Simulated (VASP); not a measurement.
# Uniaxial [001] strain in zinc-blende CdTe: Poisson ratio, Young's modulus and limits of linear elasticity at LDA

A CdTe layer in a detector or solar cell is strained by its substrate and by cooling after growth, and the resulting stress can bend the wafer or crack the film. To estimate that stress I need the elastic moduli and the strain at which they stop being constant. I stretch and compress the crystal along [001] by up to 2 %, let the sides relax until the stress across the axis vanishes, and follow the transverse strain, the axial stress and the energy per atom. Strains are measured against the LDA-relaxed cubic cell, and tension is positive. Everything refers to a perfect static lattice.

## Set-up

The start is a typed prototype cell. The crystal was relaxed with LDA. Strain is imposed along [001]; the strain across the axis is adjusted until the stress across it vanishes, and the atoms are relaxed with LDA. VASP 6.6.1, plane waves with PAW, cutoff 450 eV, no spin polarisation, no spin-orbit coupling, k mesh 8×8×8, static lattice.

Notes on method and selection:

- Runs that did not converge, have known faults or may not be shown are not listed, and runs on Ansatz's PAW sets soft_1 and soft_2 are kept to separate tables.

Columns:

- strain (%): strain along the axis (tension positive).
- gap (eV): band gap on the k mesh at LDA.
- transverse strain (%): strain across the axis.
- stress (GPa): stress along the axis, tension positive.
- strain energy (meV/atom): energy per atom above the relaxed crystal.

## Computed values

| member | strain (%) | gap (eV) | transverse strain (%) | stress (GPa) | strain energy (meV/atom) |
| --- | --- | --- | --- | --- | --- |
| −2 % | −2.0 | 0.592 | 0.829 | −0.486 | 1.144 |
| −1.5 % | −1.5 | 0.605 | 0.620 | −0.371 | 0.674 |
| −1 % | −1.0 | 0.618 | 0.414 | −0.252 | 0.338 |
| −0.5 % | −0.5 | 0.631 | 0.208 | −0.128 | 0.113 |
| 0 % | 0.0 | 0.644 | 0.000 | −0.003 | 0.023 |
| +0.5 % | 0.5 | 0.633 | −0.199 | 0.131 | 0.072 |
| +1 % | 1.0 | 0.621 | −0.401 | 0.267 | 0.254 |
| +1.5 % | 1.5 | 0.609 | −0.601 | 0.404 | 0.565 |
| +2 % | 2.0 | 0.597 | −0.800 | 0.546 | 1.031 |

transverse strain (%) against strain (%):

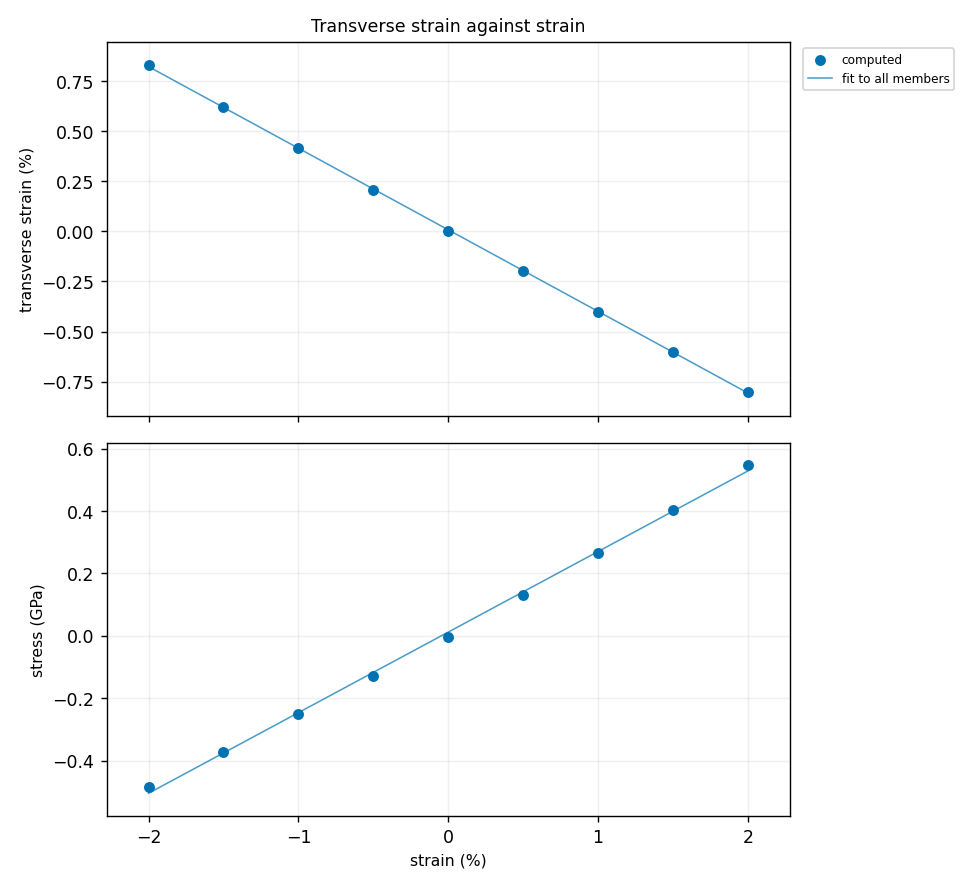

Least-squares fits to the whole series, with x = strain (%); R² and errors in the fitted variable (y, or ln y where the fit is in ln y):

| y | members | fit | R² | rms residual | leave-one-out rms | the same for the mean of the others |
| --- | --- | --- | --- | --- | --- | --- |
| transverse strain (%) | 9 | y = 0.007778 − 0.4072 x | 1.00 | 0.0045 | 0.0063 | 0.59 |
| stress (GPa) | 9 | y = 0.01200 + 0.2583 x | 1.00 | 0.011 | 0.016 | 0.38 |

## Interpretation

The transverse strain follows the axial strain with a slope of −0.4072, so the Poisson ratio ν is 0.407. The stress rises by 0.2583 GPa per % of strain, which gives a Young's modulus along [001] of E = 0.2583 × 100 = 25.83 GPa. Both lines predict left-out rows far better than the mean does.

For a cubic crystal under [001] stress, two combinations of elastic constants follow:

- C₁₁ − C₁₂ = E/(1 + ν) = 25.83 / (1 + 0.4072) = 18.4 GPa
- bulk modulus B = E/[3(1 − 2ν)] = 25.83 / (3 × (1 − 2 × 0.4072)) = 46.4 GPa

Hence C₁₁ = 46.4 + 2 × 18.4 / 3 = 58.7 GPa and C₁₂ = 46.4 − 18.4 / 3 = 40.3 GPa. C₄₄ does not enter, because this strain contains no shear of the cube axes against each other.

The crystal is much softer in shape than in volume, and the bonds show why. The atoms keep their fractional positions, so the bond length changes, to first order, by one third of the summed strains. At +2 % that is (2.0 − 2 × 0.800) / 3 = 0.13 %. The bonds mostly turn, and bending bond angles costs much less than stretching bonds.

The stress is not quite linear. Between −2 % and −1.5 % its slope is (0.486 − 0.371) / 0.5 = 0.230 GPa per %, and between +1.5 % and +2 % it is (0.546 − 0.404) / 0.5 = 0.284 GPa per %. CdTe therefore stiffens in tension and softens in compression. A likely contribution is that tension turns the bonds towards the axis, where their stiff stretching carries more of the load.

The strain energy is close to quadratic. Averaged over both signs and counted from the 0 % row, it is (0.338 + 0.254) / 2 − 0.023 = 0.273 meV/atom at 1 % and (1.144 + 1.031) / 2 − 0.023 = 1.06 meV/atom at 2 %. The ratio is 1.06 / 0.273 = 3.9, where a pure square gives 4.

The gap is largest in the cubic cell. Strain of either sign splits the threefold valence-band top, and one branch moves up towards the conduction band.

## Residuals

Largest departures from the fit to the whole series:

| member | transverse strain (%) | fit | computed − fit | in rms residuals |
| --- | --- | --- | --- | --- |
| 0 % | 0.000 | 0.008 | −0.008 | 1.7 |
| −2 % | 0.829 | 0.822 | +0.007 | 1.5 |
| +2 % | −0.800 | −0.807 | +0.007 | 1.5 |
| −0.5 % | 0.208 | 0.211 | −0.003 | 0.8 |

The 0 % row lies farthest from the transverse line, by −0.008 %. Part of this is the line being lifted by curvature. The rest arises because this row keeps its cubic cell and a residual stress of −0.003 GPa, while the other rows have their sides adjusted. Releasing that stress across the axis would widen the cell by 0.003 / (58.7 + 40.3) = 0.00003, or 0.003 %.

The rows at −2 % and +2 % both lie 0.007 % above the line. This is mainly the geometry of finite strain: a constant ratio of logarithmic strains adds ½ν(1 + ν)ε², which is 0.5 × 0.407 × (1 + 0.407) × 0.02² = 0.00011, or 0.011 %, at either end.

The energies have an oddity of their own. Compression costs more than tension (1.144 against 1.031 meV/atom at 2 %), although the stress is larger in tension. The likeliest cause is the finite plane-wave basis. At a fixed cutoff the number of plane waves changes with the cell; the energies include the effect of that change, but the computed stress leaves it out (the Pulay stress). A cell relaxed to zero computed stress is then slightly too small, and the energy still falls as the volume grows in tension. From the ±0.5 % rows it falls by (0.113 − 0.072) / 1.0 = 0.041 meV/atom per % towards tension, which puts its minimum near 0.041 / (2 × 0.273) = 0.08 % strain. The 0.023 meV/atom at zero strain is an offset of the reference energy, and it cancels in differences between rows.

## Using the table

**What strain does a tensile stress of 0.30 GPa produce?**
The stress lies between the rows at 1.0 % (0.267 GPa) and 1.5 % (0.404 GPa). Interpolation gives 1.0 + 0.5 × (0.300 − 0.267) / (0.404 − 0.267) = 1.12 %. The constant modulus gives 0.300 / 0.2583 = 1.16 %, which is close enough for most design work.

**Can the moduli be taken from a single cell strained by 2 %?**
In compression E = 100 × 0.486 / 2.0 = 24.3 GPa and ν = 0.829 / 2.0 = 0.415, so C₁₁ − C₁₂ = 24.3 / (1 + 0.415) = 17.2 GPa. In tension E = 100 × 0.546 / 2.0 = 27.3 GPa and ν = 0.800 / 2.0 = 0.400, so C₁₁ − C₁₂ = 27.3 / (1 + 0.400) = 19.5 GPa. Each is about 6 % away from the 18.4 GPa of the whole series, on opposite sides. Two cells of opposite strain remove most of the error, since (17.2 + 19.5) / 2 = 18.4 GPa.

**What stress does a (001) film carry when its substrate stretches it by 0.5 % in both in-plane directions?**
With a free surface the biaxial modulus is C₁₁ + C₁₂ − 2C₁₂²/C₁₁ = 58.7 + 40.3 − 2 × 40.3² / 58.7 = 43.7 GPa. The in-plane stress is 43.7 × 0.005 = 0.22 GPa. The film thins by 2 × 40.3 / 58.7 × 0.5 = 0.69 %.

## Rules of thumb and their limits

Against a straight line of 0.258 GPa per % through zero, the computed stress is off by at most 0.009 GPa at ±1 %, under 4 %, and by 0.030 GPa at ±2 %, about 6 %. I would use constant moduli up to 1 % and add the curvature beyond. The Poisson ratio stays nearly constant over the whole range once logarithmic strains are used and the small residual stress of the starting cell is allowed for.

I take the moduli from the stress slopes, because the basis term missing from the stress is nearly constant over this range and hardly changes them.

LDA usually binds too strongly and makes crystals of this kind somewhat too stiff. Thermal motion, absent here, softens the lattice. Both put the computed moduli on the high side of those expected for a warm crystal. Dislocations are also absent: bulk CdTe yields plastically well below the largest stresses in the table, so the upper part of the range is of use mainly for thin, coherently strained layers.
